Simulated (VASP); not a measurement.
# MgB₂ (P6/mmm): pressure and energy within 6% of the equilibrium volume, PBEsol + D3(BJ)

We have to decide whether, once the equilibrium volume is known, two static calculations are enough to turn a small volume change of MgB₂ into a pressure and an energy, or whether each volume must be run separately. This matters wherever many strained cells are to be screened. The series scales one relaxed cell evenly through seven volumes. Volume changes are counted from the minimum of the Birch-Murnaghan fit, and energies, per atom, from the lowest point of the series. The pressure is the mean of the diagonal stress components, positive when the cell is compressed. The test is internal: a model fixed on two pressures must return the other pressures and, with no further fitting, the energies.

## Set-up

A cell from a diffraction database, relaxed at this level and then scaled evenly, fractional positions kept. VASP 6.6.1, plane waves with PAW, PBEsol + D3(BJ), cutoff 420 eV, k mesh 7×7×6, no spin polarisation, no spin-orbit coupling, static lattice. A Birch-Murnaghan fit to the energies has its minimum at 9.22 Å³ per atom.

Notes on method and selection:

- The pressure is that of a finite plane-wave basis, so it need not vanish exactly at the minimum of the energy.
- Only series whose fit has its minimum inside the range and an error under 0.5 meV per atom are shown.
- Where rows or columns differ in functional or spin-orbit coupling, non-spherical gradient terms in the PAW spheres (LASPH) may be on in some and off in others.
- Runs that did not converge, have known faults or may not be shown are not listed, and runs on Ansatz's PAW sets soft_1 and soft_2 are kept to separate tables.

Columns:

- volume change (%): volume relative to the fitted equilibrium volume.
- pressure (GPa): pressure from the stress tensor (positive: compressed).
- energy (meV/atom): energy per atom above the lowest point of the series.

Input lines of one member:

```
PREC = Accurate
ENCUT = 420
EDIFF = 1E-06
NELM = 100
ISMEAR = 0
SIGMA = 0.05
LREAL = .FALSE.
ALGO = Normal
GGA = PS
IVDW = 12
NBANDS = 10
LORBIT = 11
KPAR = 2
ISIF = 2
```

Command (options for logging and memory left out): `mpirun -np 2 vasp_std`

## Numbers

| member | volume change (%) | pressure (GPa) | energy (meV/atom) |
| --- | --- | --- | --- |
| 8.67 Å³ | −5.99 | 11.40 | 18.76 |
| 8.86 Å³ | −3.99 | 7.24 | 8.06 |
| 9.04 Å³ | −1.99 | 3.45 | 1.94 |
| 9.23 Å³ | 0.01 | 0.00 | 0.00 |
| 9.41 Å³ | 2.01 | −3.14 | 1.85 |
| 9.59 Å³ | 4.01 | −6.00 | 7.15 |
| 9.78 Å³ | 6.01 | −8.61 | 15.59 |

pressure (GPa) against volume change (%):

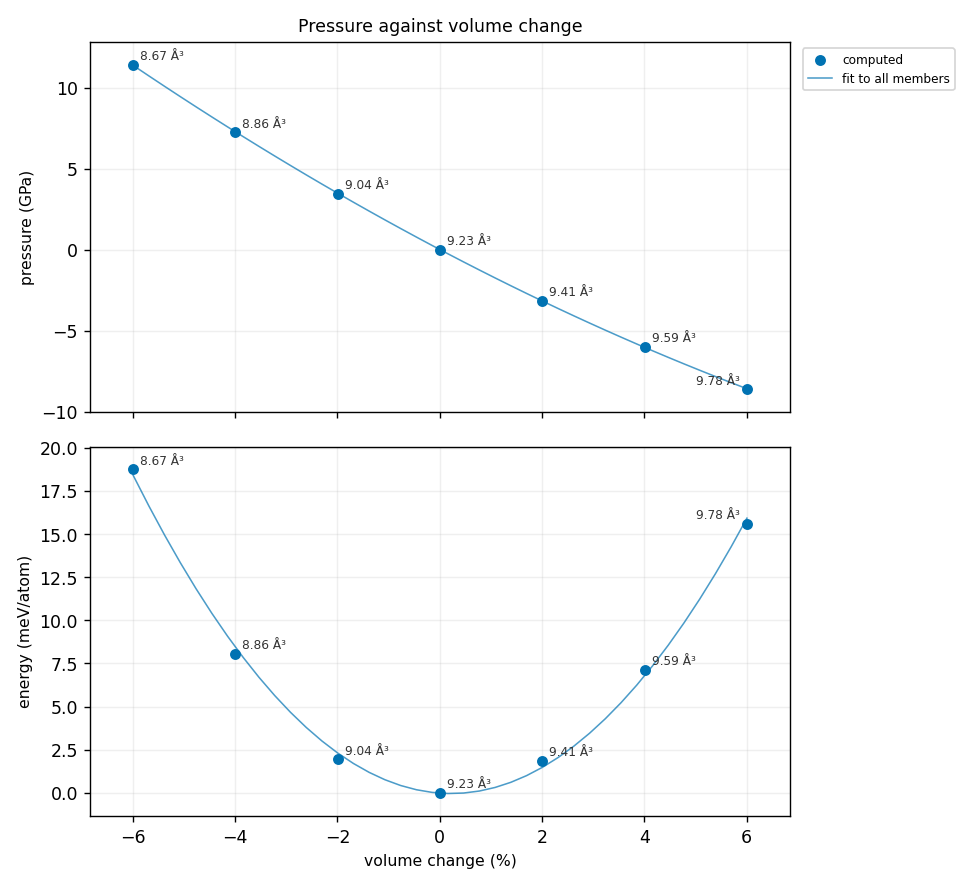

Least-squares fits to the whole series, with x = volume change (%); R² and errors in the fitted variable (y, or ln y where the fit is in ln y):

| y | members | fit | R² | rms residual | leave-one-out rms | the same for the mean of the others |
| --- | --- | --- | --- | --- | --- | --- |
| pressure (GPa) | 7 | y = 0.016629 − 1.6633 x + 0.038750 x² | 1.00 | 0.028 | 0.074 | 7.8 |
| energy (meV/atom) | 7 | y = −0.01363 − 0.2135 x + 0.4773 x² | 1.00 | 0.34 | 0.90 | 7.8 |

## Mechanism

The pressure falls from 11.40 GPa at the smallest volume to −8.61 GPa at the largest, and the energy rises on both sides of equilibrium. Neither curve is symmetric: compression by 5.99% costs 18.76 meV/atom, expansion by 6.01% only 15.59. The crystal stiffens as it is compressed, because at shorter distances the repulsion between overlapping electron shells and the kinetic energy of the electrons grow faster than the attraction.

The simplest model that carries this has two parameters, the bulk modulus B₀ at equilibrium and its pressure derivative B′. We assume that

- the pressure is zero at the equilibrium volume V₀;
- the bulk modulus, B = −V dP/dV, grows linearly with pressure, B = B₀ + B′P;
- the relative volume change s = (V − V₀)/V₀ is small, so that terms beyond s² in the pressure can be dropped.

With V = V₀(1 + s), the definition of B gives

dP/ds = −(B₀ + B′P)/(1 + s).

To lowest order P = −B₀s. Putting this on the right-hand side and keeping terms linear in s gives

dP/ds = −B₀[1 − (1 + B′)s].

Integration from s = 0 yields

P = −B₀s + ½B₀(1 + B′)s².

In terms of the tabulated percentage x = 100s this is

P = −bx + cx², with b = B₀/100 and c = B₀(1 + B′)/20000.

The energy is the work done against the pressure, E = −∫P dV, and therefore

E = (V₀/100)(bx²/2 − cx³/3).

The term in c raises the pressure on both sides. It adds to the energy of compression and takes from that of expansion, which is the asymmetry seen in the table.

## Testing the model

We fix the model on the members at 8.86 and 9.59 Å³. Dividing each pressure by its volume change gives two equations:

- 8.86 Å³: 7.24 / 3.99 = 1.8145, which equals b + 3.99c
- 9.59 Å³: b − 4.01c = 6.00 / 4.01 = 1.4963

Hence c = (1.8145 − 1.4963) / (3.99 + 4.01) = 0.0398 GPa per %², and b = 1.4963 + 4.01 × 0.0398 = 1.656 GPa per %. This means B₀ = 166 GPa and B′ = 200 × 0.0398 / 1.656 − 1 = 3.8.

Pressures of four other members, in GPa:

- 8.67 Å³: 1.656 × 5.99 + 0.0398 × 5.99² = 11.35; table 11.40
- 9.04 Å³: 1.656 × 1.99 + 0.0398 × 1.99² = 3.45; table 3.45
- 9.41 Å³: −1.656 × 2.01 + 0.0398 × 2.01² = −3.17; table −3.14
- 9.78 Å³: −1.656 × 6.01 + 0.0398 × 6.01² = −8.51; table −8.61

For the energy, 1 GPa Å³ is 6.242 meV, so the prefactor is 9.22 / 100 × 6.242 = 0.5755. In meV/atom:

- 8.67 Å³: 0.5755 × (1.656 × 5.99² / 2 + 0.0398 × 5.99³ / 3) = 18.74; table 18.76
- 9.04 Å³: 0.5755 × (1.656 × 1.99² / 2 + 0.0398 × 1.99³ / 3) = 1.95; table 1.94
- 9.41 Å³: 0.5755 × (1.656 × 2.01² / 2 − 0.0398 × 2.01³ / 3) = 1.86; table 1.85
- 9.78 Å³: 0.5755 × (1.656 × 6.01² / 2 − 0.0398 × 6.01³ / 3) = 15.55; table 15.59

Over the five members not used to fix it, the model misses the pressure by typically 0.05 GPa, against 7.8 GPa for the mean of the others. No energy in the series is missed by more than 0.04 meV/atom.

## Departures from the trend

The pressure model is weakest at the two ends. It gives 0.05 GPa too little compression at −5.99% and 0.10 GPa too little tension at 6.01%. The assumption that fails is the cut after s²: the next term, −B₀(1 + B′)(2 + B′)s³/6, has the sign needed at both ends and, once the model is pinned near ±4%, leaves a miss of roughly 0.1 GPa. The smaller misses nearer equilibrium are of the size expected from the same cut together with the rounding of the inputs. Dropping the s² term as well would be far worse, giving 1.656 × 5.99 = 9.92 GPa where the table has 11.40.

A larger limit lies in the path itself. The axial ratio was held fixed, and the stress is larger in magnitude within the boron planes, with their stiff covalent bonds, than along c. Under truly hydrostatic pressure the c axis would shorten more than a. The same volume change would then need a pressure smaller in magnitude, by a rough 5%, so B₀ here is somewhat too high for a hydrostatic experiment.

## Closing remarks

With the equilibrium volume known from a relaxation, two runs near ±4% are enough for volume changes within 6% at fixed cell shape. Of the omitted effects, the zero-point energy exceeds the energy span of the table: it is positive and roughly 80 meV/atom, though mostly common to all volumes. Its volume dependence adds a pressure equal to the Grüneisen parameter times the zero-point energy per volume. With that parameter assumed to be about 1.5, this is roughly 1.5 × 80 / 9.22 / 6.242 = 2.1 GPa.

The model should be used with relative volumes. This level puts equilibrium several percent below the volume of the diffraction cell, so at a given absolute volume its pressure is too low by several GPa. A likely contribution, not separated here, is the attraction that D3(BJ) adds to a functional that already favours compact cells; the missing zero-point pressure acts in the same direction.

[Logs are printed without paths, hosts, clocks, repeated set-up lines and the standing remarks that a program may print on its own settings, such as how far it seeks lower states.]
